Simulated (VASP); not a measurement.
# Relaxed cell volume of cubic SrTiO3 (Pm-3m) against the diffraction cell: LDA, GGA and r2SCAN levels with and without dispersion terms

We calculate the relaxed static volume of cubic SrTiO3 at eight levels of theory and give each as a percentage deviation from the diffraction cell of 11.91 Å³ per atom; a positive sign means too large a cell. SrTiO3 is a common substrate for oxide films, so an error in its calculated lattice constant enters directly into the misfit strain assigned to a film. In a cubic crystal the relative error of the lattice constant is about one third of that of the volume. The second question is what a dispersion term does in a solid held together mainly by ionic and covalent bonds, where such a term is often added by habit. The symmetry stays cubic throughout, so only the lattice constant responds.

## Calculations

The start is the cell of a diffraction database, 11.91 Å³ per atom, whose temperature is that of the entry, mostly ambient. VASP 6.6.1, plane waves with PAW, cutoff 560 eV; cell and atoms fully relaxed at zero pressure at each level, static lattice, no spin polarisation, no spin-orbit coupling. All ran on Intel(R) Xeon(R) 6975P-C (Granite Rapids), shared with other work, so times are rough. All levels use the PAW data sets made with PBE.

Notes on method and selection:

- The diffraction cell holds zero-point and thermal expansion, typically 0.5 to 2 % in volume at room temperature, which a static relaxation lacks.
- Crystals whose PBE volume lies more than 1.5 % under or 25 % over the diffraction cell, or whose cell differs by over 0.3 % from another measurement, were left out.
- Non-spherical gradient terms in the PAW spheres (LASPH) were on for all rows.
- Runs that did not converge, have known faults or may not be shown are not listed, and runs on Ansatz's PAW sets soft_1 and soft_2 are kept to separate tables.

Columns:

- volume error (%): relaxed volume relative to the diffraction cell.
- volume (Å³/atom): relaxed volume per atom.
- cost per step (core-s): processor time per ionic step of the relaxation.

Input lines of one member:

```
PREC = Accurate
ENCUT = 560
EDIFF = 1E-06
NELM = 100
ISMEAR = -1
SIGMA = 0.05
LREAL = .FALSE.
ALGO = Normal
GGA = CA
NBANDS = 26
LASPH = .TRUE.
LORBIT = 11
KPAR = 4
IBRION = 2
NSW = 60
```

Command (options for logging and memory left out): `mpirun -np 4 vasp_std`

## Computed values

| member | volume error (%) | volume (Å³/atom) | cost per step (core-s) |
| --- | --- | --- | --- |
| r2SCAN + rVV10 | −0.132 | 11.896 | 110 |
| r2SCAN | 0.586 | 11.982 | 60 |
| rev-vdW-DF2 | 0.886 | 12.018 | 84 |
| PBEsol | −0.745 | 11.823 | 17 |
| PBE | 2.773 | 12.242 | 18 |
| LDA | −3.305 | 11.518 | 15 |
| PBEsol + D3(BJ) | −2.649 | 11.597 | 19 |
| PBE + D3(BJ) | ? | ? | 17 |

Cells marked ? are withheld until the estimate has been made.

## Reading the trend

Among the levels without a dispersion term, the volume error rises from LDA (−3.305 %) through PBEsol (−0.745 %) and r2SCAN (0.586 %) to PBE (2.773 %). The span is 2.773 + 3.305 = 6.078 %, or about 2 % in the lattice constant.

From LDA to PBEsol to PBE the cause is the gradient dependence of the functional, chiefly in exchange. Gradient terms lower the energy of a strongly varying density, and the density varies more strongly when the ions move apart. They therefore act as an outward pressure on the LDA cell. PBE has the stronger gradient enhancement of exchange and overshoots; PBEsol has a weaker one, chosen for the slowly varying densities of solids.

Dispersion terms add attraction and shrink the cell. To first order

$$\Delta V/V \approx -P_{\mathrm{disp}}/B,$$

where $P_{\mathrm{disp}}$ is the inward pressure of the term and $B$ the bulk modulus. D3(BJ) moves PBEsol by −2.649 + 0.745 = −1.904 %, while rVV10 moves r2SCAN by only −0.132 − 0.586 = −0.718 %. A smaller correction is expected for r2SCAN, which already describes part of the medium-range attraction, but the two dispersion terms also differ in kind, and the table cannot separate the two causes. In rev-vdW-DF2 the non-local correlation is part of the functional, so its 0.886 % cannot be split in this way.

As printed, r2SCAN + rVV10 lies nearest to the diffraction cell and LDA farthest from it. The diffraction cell, however, contains zero-point and thermal expansion, typically 0.5 to 2 %, so a faithful static calculation should fall at about −0.5 to −2 %. PBEsol alone lies in that range. Adding D3(BJ) takes it below the range, whereas rVV10 brings r2SCAN closer to it. For this crystal, then, a dispersion term is no general improvement: its effect depends on the error of the functional beneath it.

## Prediction

Plain estimates from the members shown:

- PBE + D3(BJ), mean of the 7 members shown: −0.369 %, standard deviation 1.9

The mean of the seven members, −0.369 %, is a weak starting point, because it mixes functionals that err in opposite directions. The parent functional, PBE, is in the table, and so is the effect of the same type of correction on PBEsol. We therefore carry the relative contraction of PBEsol over to PBE.

The volume ratio for PBEsol, with to without D3(BJ), is 11.597 / 11.823 = 0.9809. Applied to PBE this gives 12.242 × 0.9809 = 12.008 Å³ per atom. Against the diffraction cell that is 12.008 / 11.91 = 1.008, a volume error of about 0.8 %.

The transfer is not exact. D3(BJ) is damped with parameters fitted separately to each functional, and the larger PBE cell should be softer, which would increase the contraction. The table gives no size for either effect, so we apply no further shift.

There is no second D3(BJ) pair on which to try the route. The nearest trial is r2SCAN with rVV10: the same ratio gives 11.982 × 0.9809 = 11.753 Å³ per atom, or −1.3 %, against the −0.132 % shown, a miss of 1.2 %. That trial changes the kind of dispersion term as well as the functional, and so is harsher than the case at hand. The two contractions, 1.904 and 0.718 %, each lie (1.904 − 0.718) / 2 = 0.6 % from their mean, and we take this spread as a rough standard deviation.

**Committed estimate, PBE + D3(BJ): volume error = 0.8 ± 0.6 %.**

## The withheld result

| member | volume error (%) | volume (Å³/atom) | cost per step (core-s) |
| --- | --- | --- | --- |
| PBE + D3(BJ) | 0.685 | 11.994 | 17 |

| member | estimate | volume error (%) | computed | estimate − computed | miss in error bars |
| --- | --- | --- | --- | --- | --- |
| PBE + D3(BJ) | committed | 0.800 | 0.685 | +0.115 | 0.2 |
| PBE + D3(BJ) | mean | −0.369 | 0.685 | −1.054 |  |

volume error (%) by member:

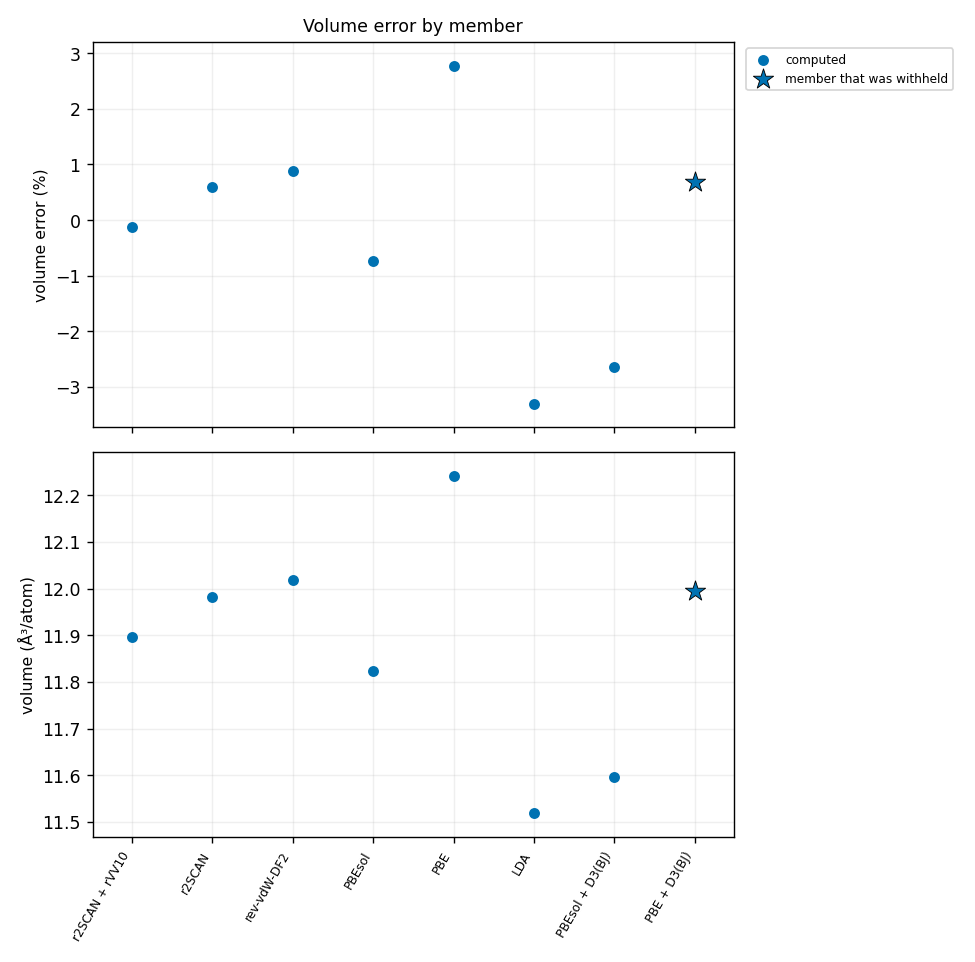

The estimate of 0.8 ± 0.6 % was 0.115 % above the computed 0.685 %, well inside its error bar. The mean of the seven other members missed by 1.054 %, about nine times as much.

Carrying the D3(BJ) contraction over from PBEsol worked. Relative to its own parent cell, PBE shrinks by (12.242 − 11.994) / 12.242 = 0.0203, or 2.0 %, and PBEsol by (11.823 − 11.597) / 11.823 = 0.0191, or 1.9 %. The slightly larger contraction of PBE has the sign expected of a softer, more expanded cell, but the different damping parameters of the two functionals could produce the same difference.

The error bar came from the contrast between D3(BJ) and rVV10, which is wider than a transfer within D3(BJ) needed here. Without the correction the two GGAs differ by 2.773 + 0.745 = 3.518 % of the diffraction volume, yet they respond to it almost equally. In this pair, then, the contraction does not adapt to the error of the functional it is added to.

## Exceptions

Against the diffraction cell as printed, LDA (−3.305 %), PBE (2.773 %) and PBEsol + D3(BJ) (−2.649 %) lie farthest out. LDA overbinds, as it commonly does in solids, and PBE errs the other way because its gradient enhancement of exchange is too strong for a dense crystal.

Allowing for the expansion contained in the measured cell changes the order. Against the expected static range of −0.5 to −2 %, PBE is too large by at least 2.773 + 0.5 = 3.3 %, whereas LDA is only 3.305 − 2 = 1.3 % below the lower edge. PBE is then the worst level of the table.

PBEsol + D3(BJ) falls about 0.6 % below the same range. PBEsol already gives a reasonable volume, so the added attraction has no expansion to correct. D3(BJ) may also overstate the attraction in an oxide such as this one, because its coefficients do not follow the ionic charge, and a cation that has lost its outer electrons is much less polarisable than the neutral atom.

## Cost

D3(BJ) adds no visible cost: the LDA and GGA runs take 15 to 19 core-s per step with or without it. r2SCAN takes 60 core-s, rev-vdW-DF2 84 and r2SCAN + rVV10 110, or roughly 3.5, 5 and 6.5 times the 17 core-s of PBEsol. Every relaxation needed the same number of ionic steps, so these factors apply to the whole run.

For the volume of this crystal the extra time buys no clear gain, since PBEsol is the only level inside the expected static range. r2SCAN may still be worth its cost for other properties, which are not shown in the table.

## Conclusions

For cubic SrTiO3, D3(BJ) reduces the volume by about 2 % with either GGA. This helps PBE and harms PBEsol. Within this pair the contraction could be transferred to about 0.1 %; carried over to r2SCAN with rVV10, it missed by 1.2 %.

For epitaxy, one third of the volume error gives the error of the substrate lattice constant: 2.773 / 3 = 0.9 % for PBE and 0.685 / 3 = 0.2 % for PBE + D3(BJ). If a measured film lattice constant is set against the calculated substrate, this error appears as false misfit strain. We would use PBEsol without a dispersion term for the static cell.

Zero-point and thermal expansion would raise the calculated volumes by roughly 0.5 to 2 %. The shift should be much the same at every level, so it changes which level agrees best with the measured cell but hardly the order of the volumes. r2SCAN, PBE + D3(BJ) and rev-vdW-DF2 lie within 0.3 % of one another, and all three lie above the expected static range.

[Logs are printed without paths, hosts, clocks, repeated set-up lines and the standing remarks that a program may print on its own settings, such as how far it seeks lower states.]
